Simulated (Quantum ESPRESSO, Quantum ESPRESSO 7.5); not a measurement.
# Bare Sommerfeld coefficient of MgB$_2$ from semilocal density functionals and the enhancement factor implied by specific heat

## The measurement

The reference is the normal-state electronic specific heat of Mg$^{11}$B$_2$ powder, measured at low temperature in fields up to 9 T and extrapolated to an upper critical field of 16 T ("Identification and Characterization of Two Energy Gaps in Superconducting MgB2 by Specific-Heat Measurements", 2001, arXiv:cond-mat/0107072). It gives $\gamma = 2.6 \pm 0.1$ mJ/(mol K$^2$) per formula unit. The extrapolation is somewhat arbitrary, though probably mild, since the coefficient nearly saturates in field. A second value, 2.7, comes from calorimetry at 14 and 16 T on another group's sample and is quoted for comparison in "Thermal conductivity of superconducting MgB2" (2001, arXiv:cond-mat/0104203). The lattice constants are from Guinier powder diffraction on an undoped polycrystal ("Role of charge doping and lattice distortions in codoped Mg_{1-x}(AlLi)_{x}B_2 compounds", 2005, arXiv:cond-mat/0506162). Both specific-heat values contain the electron-phonon enhancement.

| compared with | measured | source's wording or label | method |
| --- | --- | --- | --- |
| a (Å) | 3.085 | a axis | powder XRD (Guinier) |
| c (Å) | 3.525 | c axis | powder XRD (Guinier) |
| γ (mJ/(mol K²)) | 2.6 ± 0.1 | 2.6 ± 0.1 mJ mol-1 K-2 | low-temperature specific heat in magnetic fields to 9 T * |
| γ (mJ/(mol K²)) | 2.7 | 2.7 ± 0.15 mJ/mol K2 | calorimetry in high magnetic field |

Where a quantity has several values, deviations refer to the one marked *.

Conditions are those given with the value in the passage it was taken from; "not stated" means there, and the paper may say more elsewhere. The values are a selection: others may have been left out beforehand as unlike or outlying.

## Model and target

We want the bare band value of $\gamma$, which follows from the density of states at the Fermi level, $\gamma_0 = \pi^2 k_B^2 N(E_F)/3$. It must not be expected to equal the measured coefficient. Electron-phonon coupling, strong on the boron $\sigma$ sheets and weaker on the $\pi$ sheets, raises the measured value by a factor $1+\lambda$. Success therefore means a bare value that lies below the measured one and is stable against the numerical settings, so that the ratio of the two can be read as $1+\lambda$. We set no limit in per cent.

The model is the nonmagnetic three-atom cell. We begin with a semilocal functional at the diffraction cell, whose $c$ axis is 0.002 Å shorter than the powder value cited above, a negligible difference here. The sampling of the density of states comes first, then cutoff and potentials, and finally the effect of relaxing the cell. A static relaxed cell omits thermal and zero-point expansion, for which we allow very roughly half a per cent in length with these light atoms.

System: MgB2 (magnesium diboride), layered diboride; P6/mmm (No. 191), 3 atoms in the primitive cell; the database structure is a diffraction structure: a = 3.085 Å, c = 3.523 Å; structure from the Crystallography Open Database.

## 1. A first value on a coarse mesh

We start with PBEsol at the diffraction cell and take the density of states on the same 12x12x10 mesh that serves for the charge density. This is a light way to a first number. We expect it to fall below the measured coefficient, but the mesh may well be too coarse for the small, flat $\sigma$ pockets, so the value is provisional.

**Run 1.** Quantum ESPRESSO 7.5: PBEsol, GBRV ultrasoft potentials, database structure as it is, cutoff 45 Ry (density 360 Ry), 12x12x10 k mesh, Marzari-Vanderbilt smearing 0.14 eV; density of states on 12x12x10, bare value read at that mesh's own Fermi level (tetrahedra).

Key lines of the input:
```
! potential files: GBRV ultrasoft potentials, made for PBEsol
&control
  calculation = 'nscf'
/
&system
  nat = 3
  ntyp = 2
  ecutwfc = 45
  ecutrho = 360
  nbnd = 15
  occupations = 'tetrahedra_opt'
/
&electrons
  conv_thr = 1.0d-8
  electron_maxstep = 100
  mixing_beta = 0.4
/
ATOMIC_SPECIES
  Mg 24.305 Mg.upf
  B 10.810 B.upf
[... cell and positions ...]
K_POINTS automatic
  12 12 10 0 0 0
! then dos.x, deltaE = 0.005 eV within 0.3 eV of the Fermi level, bz_sum = 'tetrahedra_opt'
```

Command:
```
OMP_NUM_THREADS=1 mpirun -n 4 pw.x -nk 4 -in dos.in > dos.out
```

Selected lines of the output:
```
# E (eV)   dos(E)     Int dos(E) EFermi =    8.931 eV
   8.926  0.7134E+00  0.1600E+02
   8.931  0.7120E+00  0.1600E+02
   8.936  0.7105E+00  0.1600E+02
```

Converged; 11 s on 4 cores of Arm Neoverse V1, shared host.

| quantity | run 1 | measured | deviation |
| --- | --- | --- | --- |
| γ (mJ/(mol K²)) | 1.678 | 2.6 ± 0.1 | −0.922 (−35.5 %) |
| N(E_F) per formula unit (states/eV) | 0.712 |  |  |

The bare value of 1.678 mJ/(mol K$^2$) lies below the measured 2.6, as it must if electron-phonon coupling supplies the rest. The ratio of the two would put $1+\lambda$ near 1.55. Around the Fermi level the density of states falls gently with energy, by less than one per cent over 0.01 eV, so a small error in the Fermi energy would do little harm. Whether the mesh resolves the Fermi surface is a separate matter that this run cannot settle.

## 2. Denser sampling of the Fermi surface

We keep the functional, cell and cutoff and refine only the mesh for the density of states, first to 24x24x20 and then to 36x36x30. Two steps are needed to see whether the value settles or merely moves. At about ten seconds for the coarse run, the denser meshes should remain affordable.

**Run 2.** Quantum ESPRESSO 7.5: PBEsol, GBRV ultrasoft potentials, database structure as it is, cutoff 45 Ry (density 360 Ry), 12x12x10 k mesh, Marzari-Vanderbilt smearing 0.14 eV; density of states on 24x24x20, bare value read at that mesh's own Fermi level (tetrahedra).

Key lines of the input, as changed from run 1:
```diff
  K_POINTS automatic
-   12 12 10 0 0 0
+   24 24 20 0 0 0
```

Selected lines of the output:
```
# E (eV)   dos(E)     Int dos(E) EFermi =    8.940 eV
   8.940  0.7019E+00  0.1600E+02
```

Converged; 28 s, same machine.

**Run 3.** Quantum ESPRESSO 7.5: PBEsol, GBRV ultrasoft potentials, database structure as it is, cutoff 45 Ry (density 360 Ry), 12x12x10 k mesh, Marzari-Vanderbilt smearing 0.14 eV; density of states on 36x36x30, bare value read at that mesh's own Fermi level (tetrahedra).

Key lines of the input, as changed from run 1:
```diff
  K_POINTS automatic
-   12 12 10 0 0 0
+   36 36 30 0 0 0
```

Selected lines of the output:
```
   8.941  0.7017E+00  0.1600E+02
```

Converged; 75 s, same machine.

| quantity | run 2 | run 3 | measured |
| --- | --- | --- | --- |
| γ (mJ/(mol K²)) | 1.654 | 1.654 | 2.6 ± 0.1 |
| N(E_F) per formula unit (states/eV) | 0.702 | 0.702 |  |

Going from the coarse to the middle mesh lowers the bare coefficient by 0.024 to 1.654 mJ/(mol K$^2$), and the densest mesh leaves it there. The density of states at the Fermi level changes only from 0.7019 to 0.7017 states/eV in the last step. The 24x24x20 mesh is therefore sufficient at this level, and even the coarse one was off by only about 1.5 %, less than we had feared for the $\sigma$ pockets.

## 3. Plane-wave cutoff and potentials

Two technical choices remain at the fixed cell. A run at 31 Ry tells whether a cheaper basis would serve, and a run with norm-conserving PseudoDojo potentials at 84 Ry tests the ultrasoft potentials against an independent set. Both use the 24x24x20 mesh. We expect shifts well below the experimental uncertainty of 0.1, since the states at the Fermi level are ordinary boron $s$ and $p$ bands.

**Run 4.** Quantum ESPRESSO 7.5: PBEsol, GBRV ultrasoft potentials, database structure as it is, cutoff 31 Ry (density 248 Ry), 12x12x10 k mesh, Marzari-Vanderbilt smearing 0.14 eV; density of states on 24x24x20, bare value read at that mesh's own Fermi level (tetrahedra).

Key lines of the input, as changed from run 2:
```diff
  &system
-   ecutwfc = 45
-   ecutrho = 360
+   ecutwfc = 31
+   ecutrho = 248
```

Selected lines of the output:
```
   8.942  0.7019E+00  0.1600E+02
```

Converged; 21 s, same machine.

**Run 5.** Quantum ESPRESSO 7.5: PBEsol, PseudoDojo norm-conserving potentials, database structure as it is, cutoff 84 Ry, 12x12x10 k mesh, Marzari-Vanderbilt smearing 0.14 eV; density of states on 24x24x20, bare value read at that mesh's own Fermi level (tetrahedra).

Key lines of the input, as changed from run 2:
```diff
- ! potential files: GBRV ultrasoft potentials, made for PBEsol
+ ! potential files: PseudoDojo norm-conserving potentials, made for PBEsol
  &system
-   ecutwfc = 45
-   ecutrho = 360
+   ecutwfc = 84
```

Selected lines of the output:
```
# E (eV)   dos(E)     Int dos(E) EFermi =    9.101 eV
   9.096  0.7017E+00  0.1600E+02
   9.101  0.7009E+00  0.1600E+02
```

Converged; 75 s, same machine.

| quantity | run 4 | run 5 | measured |
| --- | --- | --- | --- |
| γ (mJ/(mol K²)) | 1.654 | 1.652 | 2.6 ± 0.1 |
| N(E_F) per formula unit (states/eV) | 0.702 | 0.701 |  |

Neither change matters. Lowering the cutoff to 31 Ry leaves the coefficient at 1.654 mJ/(mol K$^2$), and the norm-conserving potentials give 1.652. The Fermi energies of the two potential sets differ by about 0.16 eV, but they refer to different zeros of the potential and carry no physical meaning here. For this quantity at the diffraction cell, the 31 Ry basis is good enough.

## 4. Relaxing the cell with PBEsol

So far the cell has come from diffraction. We now let PBEsol find its own cell, which shows how far the bare coefficient depends on the geometry and whether the functional describes the lattice properly. We return to 45 Ry, because the stress is usually more sensitive to the basis than the density of states is. We expect a slightly smaller cell than the measured one, with broader bands and a somewhat lower coefficient.

**Run 6.** Quantum ESPRESSO 7.5: PBEsol, GBRV ultrasoft potentials, cell and atoms relaxed in a first step at this level from the database structure (its input isn't shown), cutoff 45 Ry (density 360 Ry), 12x12x10 k mesh, Marzari-Vanderbilt smearing 0.14 eV; density of states on 24x24x20, bare value read at that mesh's own Fermi level (tetrahedra).

Key lines of the input, as changed from run 1:
```diff
  K_POINTS automatic
-   12 12 10 0 0 0
+   24 24 20 0 0 0
```

Selected lines of the output:
```
   9.176  0.6935E+00  0.1600E+02
```

Converged; 47 s, same machine.

| quantity | run 6 | measured | deviation |
| --- | --- | --- | --- |
| a (Å) | 3.066 | 3.085 | −0.019 (−0.6 %) |
| c (Å) | 3.489 | 3.525 | −0.036 (−1.0 %) |
| γ (mJ/(mol K²)) | 1.635 | 2.6 ± 0.1 | −0.965 (−37.1 %) |
| N(E_F) per formula unit (states/eV) | 0.694 |  |  |
| conventional cell volume (Å³) | 28.41 |  |  |

The relaxed cell is shorter than the measured one by 0.6 % in $a$ and 1.0 % in $c$. The bare coefficient falls with it, from 1.654 to 1.635 mJ/(mol K$^2$), in the direction we expected for broader bands. This shift of 0.019 is larger than those from cutoff and potentials, yet only about a fifth of the experimental uncertainty. An error of this size in the cell therefore hardly touches the enhancement factor.

## 5. LDA and PBE for comparison

All values so far rest on one functional. We repeat the relaxed calculation with LDA and with PBE, which usually give smaller and larger cells respectively than PBEsol. The costs should be similar, so the comparison is a test of the functional rather than a step to a dearer method. We expect the bare coefficient to follow the cell size, with LDA lowest and PBE highest, and the spread to stay within a few per cent.

**Run 7.** Quantum ESPRESSO 7.5: LDA, GBRV ultrasoft potentials, cell and atoms relaxed in a first step at this level from the database structure (its input isn't shown), cutoff 45 Ry (density 360 Ry), 12x12x10 k mesh, Marzari-Vanderbilt smearing 0.14 eV; density of states on 24x24x20, bare value read at that mesh's own Fermi level (tetrahedra).

Key lines of the input, as changed from run 2:
```diff
- ! potential files: GBRV ultrasoft potentials, made for PBEsol
+ ! potential files: GBRV ultrasoft potentials, made for LDA
```

Selected lines of the output:
```
   9.325  0.6874E+00  0.1600E+02
```

Converged; 47 s, same machine.

**Run 8.** Quantum ESPRESSO 7.5: PBE, GBRV ultrasoft potentials, cell and atoms relaxed in a first step at this level from the database structure (its input isn't shown), cutoff 45 Ry (density 360 Ry), 12x12x10 k mesh, Marzari-Vanderbilt smearing 0.14 eV; density of states on 24x24x20, bare value read at that mesh's own Fermi level (tetrahedra).

Key lines of the input, as changed from run 2:
```diff
- ! potential files: GBRV ultrasoft potentials, made for PBEsol
+ ! potential files: GBRV ultrasoft potentials, made for PBE
```

Selected lines of the output:
```
# E (eV)   dos(E)     Int dos(E) EFermi =    9.083 eV
   9.079  0.6996E+00  0.1600E+02
   9.084  0.6988E+00  0.1600E+02
```

Converged; 44 s, same machine.

| quantity | run 7 | run 8 | measured |
| --- | --- | --- | --- |
| a (Å) | 3.040 | 3.076 | 3.085 |
| c (Å) | 3.448 | 3.515 | 3.525 |
| γ (mJ/(mol K²)) | 1.620 | 1.648 | 2.6 ± 0.1 |
| N(E_F) per formula unit (states/eV) | 0.687 | 0.699 |  |
| conventional cell volume (Å³) | 27.60 | 28.80 |  |

The bare coefficient follows the cell size as we expected: 1.620 mJ/(mol K$^2$) with LDA, 1.635 with PBEsol and 1.648 with PBE. The whole spread, 1.648 less 1.620, is 0.028, under 2 % and well inside the experimental uncertainty of 0.1. Before any allowance for thermal and zero-point expansion, PBE comes closest to the measured cell, short by about 0.01 Å in both $a$ and $c$, and its coefficient is within 0.006 of the PBEsol value at the diffraction cell. This suggests that the functionals differ here mainly through the cells they produce, although LDA and PBE at the diffraction cell, which would separate the two effects, are not shown in this report.

The ratio of the measured to the bare coefficient is about 1.6 with LDA and slightly lower, 1.58, with PBE. The choice among these three functionals thus matters less for the enhancement than the uncertainty of the specific-heat measurement does.

## Collected results

| run | settings | a (Å) | c (Å) | γ (mJ/(mol K²)) | cost |
| --- | --- | --- | --- | --- | --- |
| 1 | PBEsol, GBRV ultrasoft potentials, database structure as it is, cutoff 45 Ry (density 360 Ry), density of states on 12x12x10 | – | – | 1.678 | under 1 core-min |
| 2 | PBEsol, GBRV ultrasoft potentials, database structure as it is, cutoff 45 Ry (density 360 Ry), density of states on 24x24x20 | – | – | 1.654 | 1.9 core-min |
| 3 | PBEsol, GBRV ultrasoft potentials, database structure as it is, cutoff 45 Ry (density 360 Ry), density of states on 36x36x30 | – | – | 1.654 | 5 core-min |
| 4 | PBEsol, GBRV ultrasoft potentials, database structure as it is, cutoff 31 Ry (density 248 Ry), density of states on 24x24x20 | – | – | 1.654 | 83 core-s |
| 5 | PBEsol, PseudoDojo norm-conserving potentials, database structure as it is, cutoff 84 Ry, density of states on 24x24x20 | – | – | 1.652 | 5 core-min |
| 6 | PBEsol, GBRV ultrasoft potentials, cutoff 45 Ry (density 360 Ry), density of states on 24x24x20 | 3.066 | 3.489 | 1.635 | 3.1 core-min |
| 7 | LDA, GBRV ultrasoft potentials, cutoff 45 Ry (density 360 Ry), density of states on 24x24x20 | 3.040 | 3.448 | 1.620 | 3.1 core-min |
| 8 | PBE, GBRV ultrasoft potentials, cutoff 45 Ry (density 360 Ry), density of states on 24x24x20 | 3.076 | 3.515 | 1.648 | 2.9 core-min |
|  | measured | 3.085 | 3.525 | 2.6 ± 0.1 |  |

The runs in order, against the measurement:

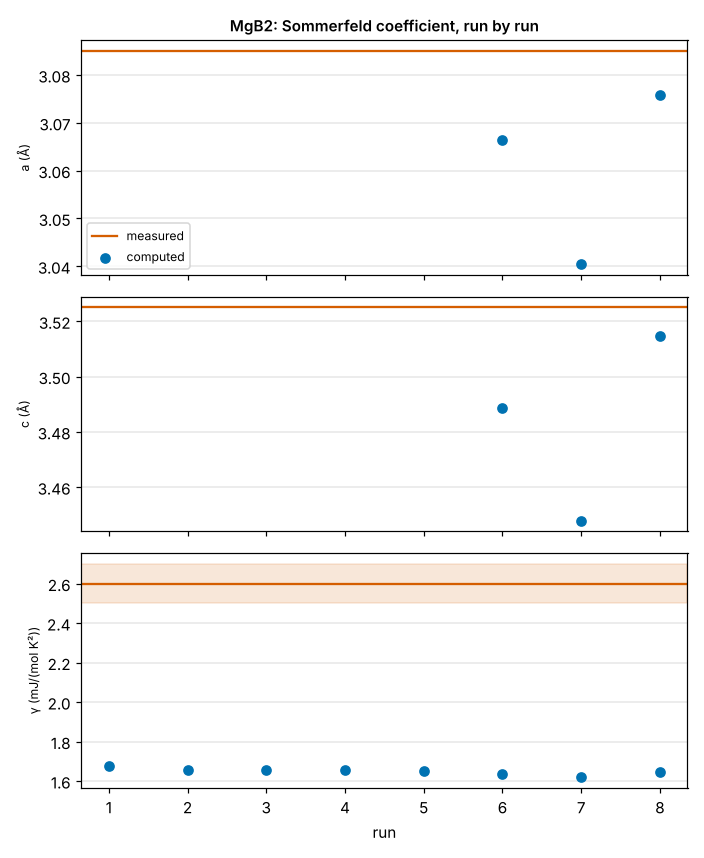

Further runs on the same system, made beside this series (convergence steps with loose settings among them):

| further | settings | a (Å) | c (Å) | γ (mJ/(mol K²)) | cost |
| --- | --- | --- | --- | --- | --- |
| F1 | BLYP, GBRV ultrasoft potentials, cutoff 45 Ry (density 360 Ry), 12x12x10 k mesh, PBE files, density of states on 24x24x20 | 3.090 | 3.551 | 1.680 | 3.3 core-min |
| F2 | PBEsol, GBRV ultrasoft potentials, database structure as it is, cutoff 45 Ry (density 360 Ry), 9x9x6 k mesh, density of states on 18x18x12 | – | – | 1.664 | under 1 core-min |
|  | measured | 3.085 | 3.525 | 2.6 ± 0.1 |  |

## Outcome

The target is met: the bare coefficient lies below the measured one and is stable against the mesh for the density of states, the cutoff and the potentials. A separate variation of the charge-density mesh or of the smearing is not shown in this report; the further run F2, with both meshes coarser, gives 1.664. PBEsol at the diffraction cell, with a 31 Ry cutoff and the 24x24x20 mesh, gives 1.654 mJ/(mol K$^2$) against $2.6 \pm 0.1$, for 83 core-seconds. The ratio gives $1+\lambda \approx 1.57$, with about 0.06 either way from the uncertainty of the measurement; the second calorimetric value, 2.7, would give 1.63.

The mesh refinement mattered most among the numerical settings, lowering the coefficient by 0.024. The 45 Ry basis brought no gain for this quantity at the fixed cell, and norm-conserving potentials changed it by only 0.002. Relaxing the cell was not needed for the target, but it showed that a cell error of about one per cent has little influence. Our rough allowance of half a per cent for thermal and zero-point expansion would cover most of the PBEsol shortfall in $a$ and about half of that in $c$, and would carry PBE slightly past the measured values. The allowance is an estimate, so the lattice constants do not decide between the two functionals.

A further BLYP run gives a larger cell and 1.680, which widens the spread among functionals to about 0.06. This is still below the experimental uncertainty, though that run used potentials made for PBE.

The missing 0.946 has the sign expected of electron-phonon enhancement. That assignment rests on theory: a phonon calculation is not shown in this report, and the ratio would also absorb any error in the band density of states or in the extrapolation to 16 T. The ratio is an average over the $\sigma$ and $\pi$ sheets, weighted by their density of states, and cannot separate them. A calculation of the electron-phonon coupling would provide the independent test.

[Logs are printed without paths, hosts, clocks, repeated set-up lines and the standing remarks that a program may print on its own settings, such as how far it seeks lower states.]

[The runs shown are a pick from a larger set of finished runs; failed, doubtful and other runs were left out of it ahead of writing. So were measured values far from every level or from commonly accepted values, and agreement can look better than it is. Lines of input and output are excerpts and may be shortened.]
